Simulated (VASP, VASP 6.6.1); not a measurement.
# Bulk modulus of CeO₂ from PBEsol and LDA, with and without a Hubbard term on cerium

## Reference data

The reference is a zero-pressure bulk modulus of 195 ± 10 GPa from "Pressure Induced Stability Enhancement of Cubic Nanostructured CeO2" (2020, PubMed Central 7221606). A single crystal about 10 µm thick was compressed in helium and followed by X-ray diffraction. What was observed is therefore the cell volume as a function of pressure; the modulus is the K₀ of a third-order Birch–Murnaghan fit to it. In such a fit K₀ is correlated with its pressure derivative, so that a somewhat stiffer crystal with a smaller derivative can describe nearly the same curve. My own reservation is that the value seems to me on the low side for ceria. The temperature is not given with the value.

| compared with | measured | source's wording or label | method |
| --- | --- | --- | --- |
| bulk modulus (GPa) | 195 ± 10 | K0 from third-order Birch-Murnaghan fit | high-pressure single-crystal XRD, EOS fit |

Conditions are those given with the value in the passage it was taken from; "not stated" means there, and the paper may say more elsewhere. The values are a selection: others may have been left out beforehand as unlike or outlying.

## Method

The aim is the bulk modulus of stoichiometric, fluorite-type CeO₂ to within 10 %, about 20 GPa. That is close enough to be useful for estimating elastic strain in ceramics and films, and it is a fair demand on a density functional for a stiff oxide. The model is the perfect crystal without oxygen vacancies, relaxed and then held at two volumes on either side of equilibrium; the pressure difference gives the modulus.

I start with PBEsol. The modulus depends strongly on the equilibrium volume, which PBEsol usually gives well for dense oxides, whereas LDA tends to make them too small and stiff and PBE too large and soft. The formally empty Ce 4f shell makes a plain semilocal functional a reasonable start, although the 4f states mix with O 2p and a Hubbard term can still shift the result. The calculation is for static nuclei at zero temperature, so it should lie a few per cent above a room-temperature modulus. After the first value I will test the numerical settings and then set a neighbouring level beside it.

System: CeO2, space group Fm-3m (Cerianite); Fm-3m (No. 225), 6 atoms in the cell; conventional a = 5.411 A, from a published structure refinement (COD).

On the selection of runs and values: 1 further cited values are not listed: repeats, values quoted from earlier work, more than five for one quantity or six quantities, or quantities that fewer than three runs give.

## 1. PBEsol at the relaxed volume

This run supplies the modulus on which the rest of the note builds. I expect a non-magnetic solution despite the alternating starting moments, and a modulus somewhat above the measured one. A moment left on cerium would mean that the calculation had settled in a different electronic state.

**Run 1.** VASP 6.6.1: PBEsol, alternating starting moments; 520 eV, 8x8x8 k mesh; cell and atoms relaxed, relaxed twice, then two volume points with shape and atoms relaxed, LASPH on.

Key lines of the input:
```
ALGO = Normal
AMIX = 0.2
AMIX_MAG = 0.8
BMIX = 1E-04
BMIX_MAG = 1E-04
EDIFF = 1E-06
EDIFFG = -0.006
ENCUT = 520
GGA = PS
IBRION = 2
ISIF = 3
ISMEAR = 0
ISPIN = 2
LASPH = .TRUE.
LMAXMIX = 6
MAGMOM = 1 -1 0 0 0 0
NBANDS = 33
NELM = 150
NSW = 50
PREC = Accurate
SIGMA = 0.03
relax at volume step, changed lines: EDIFFG = -0.01; ISIF = 4; NSW = 30
KPOINTS: Gamma, 8 8 8
PAW data sets: Ce O (PBE 64)
```

Command:
```
mpirun -np 8 vasp_std
```

Selected lines of the output:
```
  external PRESSURE =      29.2084862 kB  Pullay stress =       0.0000000 kB
  external PRESSURE =     -27.9306373 kB  Pullay stress =       0.0000000 kB
```

Converged; 9.3 min on 8 cores of Intel Xeon Platinum 8375C at 2.90GHz (Ice Lake), shared host.

| quantity | run 1 | measured | deviation |
| --- | --- | --- | --- |
| bulk modulus (GPa) | 190.4 | 195 ± 10 | −4.6 (−2.3 %) |
| largest moment in a PAW sphere (μB) | 0 |  |  |
| volume of the conventional cell (Å³) | 157.26 |  |  |
| lattice constant a of the conventional cell (Å) | 5.398 |  |  |

PBEsol gives 190.4 GPa, 2.3 % below the reference and inside both the 10 % target and the experimental uncertainty. The cerium moment has vanished, as it should for an empty 4f shell. I had expected a value somewhat above the measured one, and it came out below. Softening with temperature would lower it further, so the close agreement should not be taken at face value.

The relaxed lattice constant is 5.398 Å, 0.013 Å shorter than the 5.411 Å of the diffraction structure. An overexpanded cell is therefore no obvious explanation for the low modulus. The two pressures, about +2.9 and −2.8 GPa, are nearly symmetric about zero, which speaks for a well-centred pair of volumes.

## 2. Basis set and k mesh

The modulus comes from a difference of two stresses, and stresses respond to the plane-wave cutoff more readily than energies do. I therefore raise the cutoff to 680 eV at the same mesh. Separately, I repeat the original cutoff with a 4×4×4 mesh to see how sensitive the result is to sampling. For a wide-gap insulator I expect little change from the mesh and at most a few GPa from the cutoff.

**Run 2.** VASP 6.6.1: PBEsol, alternating starting moments; 680 eV, 8x8x8 k mesh; cell and atoms relaxed, relaxed twice, then two volume points with shape and atoms relaxed, LASPH on.

Key lines of the input, as changed from run 1:
```diff
- ENCUT = 520
+ ENCUT = 680
```

Converged; 16 min on the same hardware.

**Run 3.** VASP 6.6.1: PBEsol, alternating starting moments; 520 eV, 4x4x4 k mesh; cell and atoms relaxed, relaxed twice, then two volume points with shape and atoms relaxed, LASPH on.

Key lines of the input, as changed from run 1:
```diff
- KPOINTS: Gamma, 8 8 8
+ KPOINTS: Gamma, 4 4 4
```

Selected lines of the output:
```
  external PRESSURE =      30.2140388 kB  Pullay stress =       0.0000000 kB
  external PRESSURE =     -27.9782883 kB  Pullay stress =       0.0000000 kB
```

Converged; 4 min on the same hardware.

| quantity | run 2 | run 3 | measured |
| --- | --- | --- | --- |
| bulk modulus (GPa) | 190.6 | 194.0 | 195 ± 10 |
| largest moment in a PAW sphere (μB) | 0 | 0 |  |
| volume of the conventional cell (Å³) | 157.14 | 157.25 |  |
| lattice constant a of the conventional cell (Å) | 5.396 | 5.398 |  |

Raising the cutoff changes the modulus by only 0.2 GPa. The mesh matters more than I expected: 4×4×4 gives 194.0 GPa, 3.6 GPa above the 8×8×8 result. Nearly all of that difference comes from the compressed cell, where the pressure is 0.1 GPa higher on the coarse mesh; at the expanded volume the two meshes almost agree. The coarse value lies closer to experiment, but that is no reason to prefer it. I keep the 8×8×8 mesh, on which all three figures that matter here, modulus, volume and lattice constant, are nearly unaffected by the higher cutoff.

## 3. A Hubbard term on cerium 4f

The larger uncertainty is now physical. Semilocal functionals place the empty 4f states too low and let them mix too freely with O 2p, and this mixing contributes to the bonding. PBEsol with U = 6 eV on cerium pushes the 4f states up and shows how much the modulus depends on it. I expect a somewhat larger cell. The sign of the change in modulus is less clear, because the larger volume softens the crystal while the altered bonding may act the other way.

**Run 4.** VASP 6.6.1: PBEsol+U (Ce 6 eV), alternating starting moments; 520 eV, 8x8x8 k mesh; cell and atoms relaxed, then two volume points with shape and atoms relaxed, LASPH on.

Key lines of the input, as changed from run 1:
```diff
+ LDAU = .TRUE.
+ LDAUJ = 0 0
+ LDAUL = 3 -1
+ LDAUTYPE = 2
+ LDAUU = 6 0
```

Selected lines of the output:
```
  external PRESSURE =      31.3745201 kB  Pullay stress =       0.0000000 kB
  external PRESSURE =     -28.7681234 kB  Pullay stress =       0.0000000 kB
```

Converged; 8.9 min on the same hardware.

| quantity | run 4 | measured | deviation |
| --- | --- | --- | --- |
| bulk modulus (GPa) | 200.5 | 195 ± 10 | +5.5 (+2.8 %) |
| largest moment in a PAW sphere (μB) | 0 |  |  |
| volume of the conventional cell (Å³) | 161.75 |  |  |
| lattice constant a of the conventional cell (Å) | 5.449 |  |  |

The Hubbard term raises the modulus by about 10 GPa, to 200.5 GPa, although the cell also grows. A larger cell alone would normally soften the crystal, so the change in bonding outweighs it. Weaker mixing of Ce 4f with O 2p is the likely reason, but these runs do not isolate it. Cerium remains without a moment.

Both levels meet the target, on opposite sides of the reference, and the modulus cannot choose between them. The lattice constant is less even-handed: 5.449 Å is 0.038 Å above the diffraction cell, whereas plain PBEsol was 0.013 Å below it. Thermal expansion would take the PBEsol+U cell further away.

## 4. LDA with and without U

If U expands the cell, a functional that starts from a smaller one may suit it better. LDA+U with the same 6 eV is therefore the natural neighbour, and plain LDA beside it shows whether the stiffening by U recurs. I expect both LDA cells to be smaller than their PBEsol counterparts and both moduli to be higher, with LDA+U closer to the diffraction cell than PBEsol+U.

**Run 5.** VASP 6.6.1: LDA, alternating starting moments; 520 eV, 8x8x8 k mesh; cell and atoms relaxed, relaxed twice, then two volume points with shape and atoms relaxed, LASPH on.

Key lines of the input, as changed from run 1:
```diff
- GGA = PS
+ GGA = CA
- PAW data sets: Ce O (PBE 64)
+ PAW data sets: Ce O (LDA 64)
```

Selected lines of the output:
```
  external PRESSURE =      31.5965147 kB  Pullay stress =       0.0000000 kB
  external PRESSURE =     -30.5885413 kB  Pullay stress =       0.0000000 kB
```

Converged; 11 min on the same hardware.

**Run 6.** VASP 6.6.1: LDA+U (Ce 6 eV), alternating starting moments; 520 eV, 8x8x8 k mesh; cell and atoms relaxed, relaxed twice, then two volume points with shape and atoms relaxed, LASPH on.

Key lines of the input, as changed from run 4:
```diff
- GGA = PS
+ GGA = CA
- PAW data sets: Ce O (PBE 64)
+ PAW data sets: Ce O (LDA 64)
```

Selected lines of the output:
```
  external PRESSURE =      33.0930677 kB  Pullay stress =       0.0000000 kB
  external PRESSURE =     -31.6896609 kB  Pullay stress =       0.0000000 kB
```

Converged; 19 min on the same hardware.

| quantity | run 5 | run 6 | measured |
| --- | --- | --- | --- |
| bulk modulus (GPa) | 207.3 | 215.9 | 195 ± 10 |
| largest moment in a PAW sphere (μB) | 0 | 0 |  |
| volume of the conventional cell (Å³) | 154.18 | 158.88 |  |
| lattice constant a of the conventional cell (Å) | 5.362 | 5.416 |  |

The stiffening by U recurs. It adds 8.6 GPa to the LDA modulus, against about 10 GPa with PBEsol, and lengthens the lattice constant by 0.054 Å, against 0.051 Å. As I expected, both LDA cells are smaller and both moduli higher than their PBEsol counterparts.

Plain LDA, at 207.3 GPa, lies 6.3 % above the reference and meets the target, but its cell is 0.049 Å shorter than the diffraction cell. LDA+U comes within 0.005 Å of that cell, the closest of the four levels, yet has the highest modulus: 215.9 GPa, 10.7 % above the reference. That is a narrow miss, and the experimental uncertainty of 10 GPa is ample to reverse it.

At face value, the best lattice constant goes with the largest deviation in the modulus. The calculated cells leave out thermal expansion, however. If the diffraction cell was measured at room temperature, expansion would take the LDA+U cell further above it and bring the PBEsol cell closer, so this ranking is not secure. Whether LDA+U is too stiff or the fitted K₀ somewhat low, these runs cannot tell.

## Comparison with experiment

| run | settings | bulk modulus (GPa) | deviation | cost |
| --- | --- | --- | --- | --- |
| 1 | PBEsol, 520 eV, 8x8x8 k mesh, relaxed twice | 190.4 | −4.6 (−2.3 %) | 75 core-min |
| 2 | PBEsol, 680 eV, 8x8x8 k mesh, relaxed twice | 190.6 | −4.4 (−2.2 %) | 2.2 core-h |
| 3 | PBEsol, 520 eV, 4x4x4 k mesh, relaxed twice | 194.0 | −1.0 (−0.5 %) | 32 core-min |
| 4 | PBEsol+U (Ce 6 eV), 520 eV, 8x8x8 k mesh | 200.5 | +5.5 (+2.8 %) | 71 core-min |
| 5 | LDA, 520 eV, 8x8x8 k mesh, relaxed twice | 207.3 | +12.3 (+6.3 %) | 86 core-min |
| 6 | LDA+U (Ce 6 eV), 520 eV, 8x8x8 k mesh, relaxed twice | 215.9 | +20.9 (+10.7 %) | 2.5 core-h |
|  | measured | 195 ± 10 |  |  |

The runs in order, against the measurement:

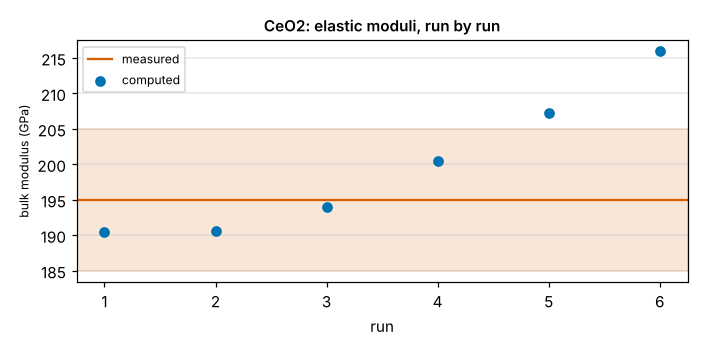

Further runs on the same system, made beside this series (convergence steps with loose settings among them):

| further | settings | bulk modulus (GPa) | deviation | cost |
| --- | --- | --- | --- | --- |
| F1 | r2SCAN, 520 eV, 8x8x8 k mesh, relaxed twice | 192.8 | −2.2 (−1.1 %) | 4.6 core-h |
| F2 | PBEsol + D3(BJ), 520 eV, 8x8x8 k mesh, relaxed twice | 203.7 | +8.7 (+4.5 %) | 65 core-min |
| F3 | PBE, 520 eV, 8x8x8 k mesh | 174.4 | −20.6 (−10.5 %) | 50 core-min |
| F4 | PBEsol, 400 eV, 8x8x8 k mesh, relaxed twice | 210.4 | +15.4 (+7.9 %) | 70 core-min |
|  | measured | 195 ± 10 |  |  |

## Discussion

PBEsol meets the 10 % target: 190.4 GPa, 2.3 % below the reference, for 75 core-minutes. This is agreement with one fitted K₀, which is correlated with its pressure derivative and which I suspect of being low.

The cutoff check mattered most. Going from 520 to 680 eV changes the modulus by only 0.2 GPa, whereas 400 eV gives 210.4 GPa, 20 GPa too stiff for the same functional. The mesh is less well secured. The 4×4×4 run showed a sensitivity of 3.6 GPa, but a denser mesh than 8×8×8 would have been the more useful test, and none is shown in this report.

The closeness does not prove that PBEsol describes the bonding correctly. A Hubbard term of 6 eV on cerium stiffens the crystal by about 10 GPa despite enlarging the cell. Too much mixing of Ce 4f with O 2p may therefore soften plain PBEsol, but that is my conjecture. The slightly short lattice constant is no clear sign of a second, compensating error, since missing thermal expansion may account for much of it.

If the measurement was made at room temperature, thermal softening would lower the calculated moduli by a few per cent. PBEsol would then lie further below the reference, though probably still within the target, while PBEsol+U would move closer to it and LDA+U could turn from a narrow miss into a pass. PBE, at 10.5 % below, also misses narrowly, and softening would widen its miss.

r2SCAN gives 192.8 GPa and supports the PBEsol value, but an experimental uncertainty of 10 GPa cannot rank these two or PBEsol+U. Whether the Hubbard term improves the modulus depends on whether ceria is really as soft as this fit suggests. Sound velocities measured on a single crystal would be the better check, because they give the modulus without a fitted pressure derivative.

[Logs are printed without paths, hosts, clocks, repeated set-up lines and the standing remarks that a program may print on its own settings, such as how far it seeks lower states.]

[The runs shown are a pick from a larger set of finished runs; failed, doubtful and other runs were left out of it ahead of writing. So were measured values far from every level or from commonly accepted values, and agreement can look better than it is. Lines of input and output are excerpts and may be shortened.]
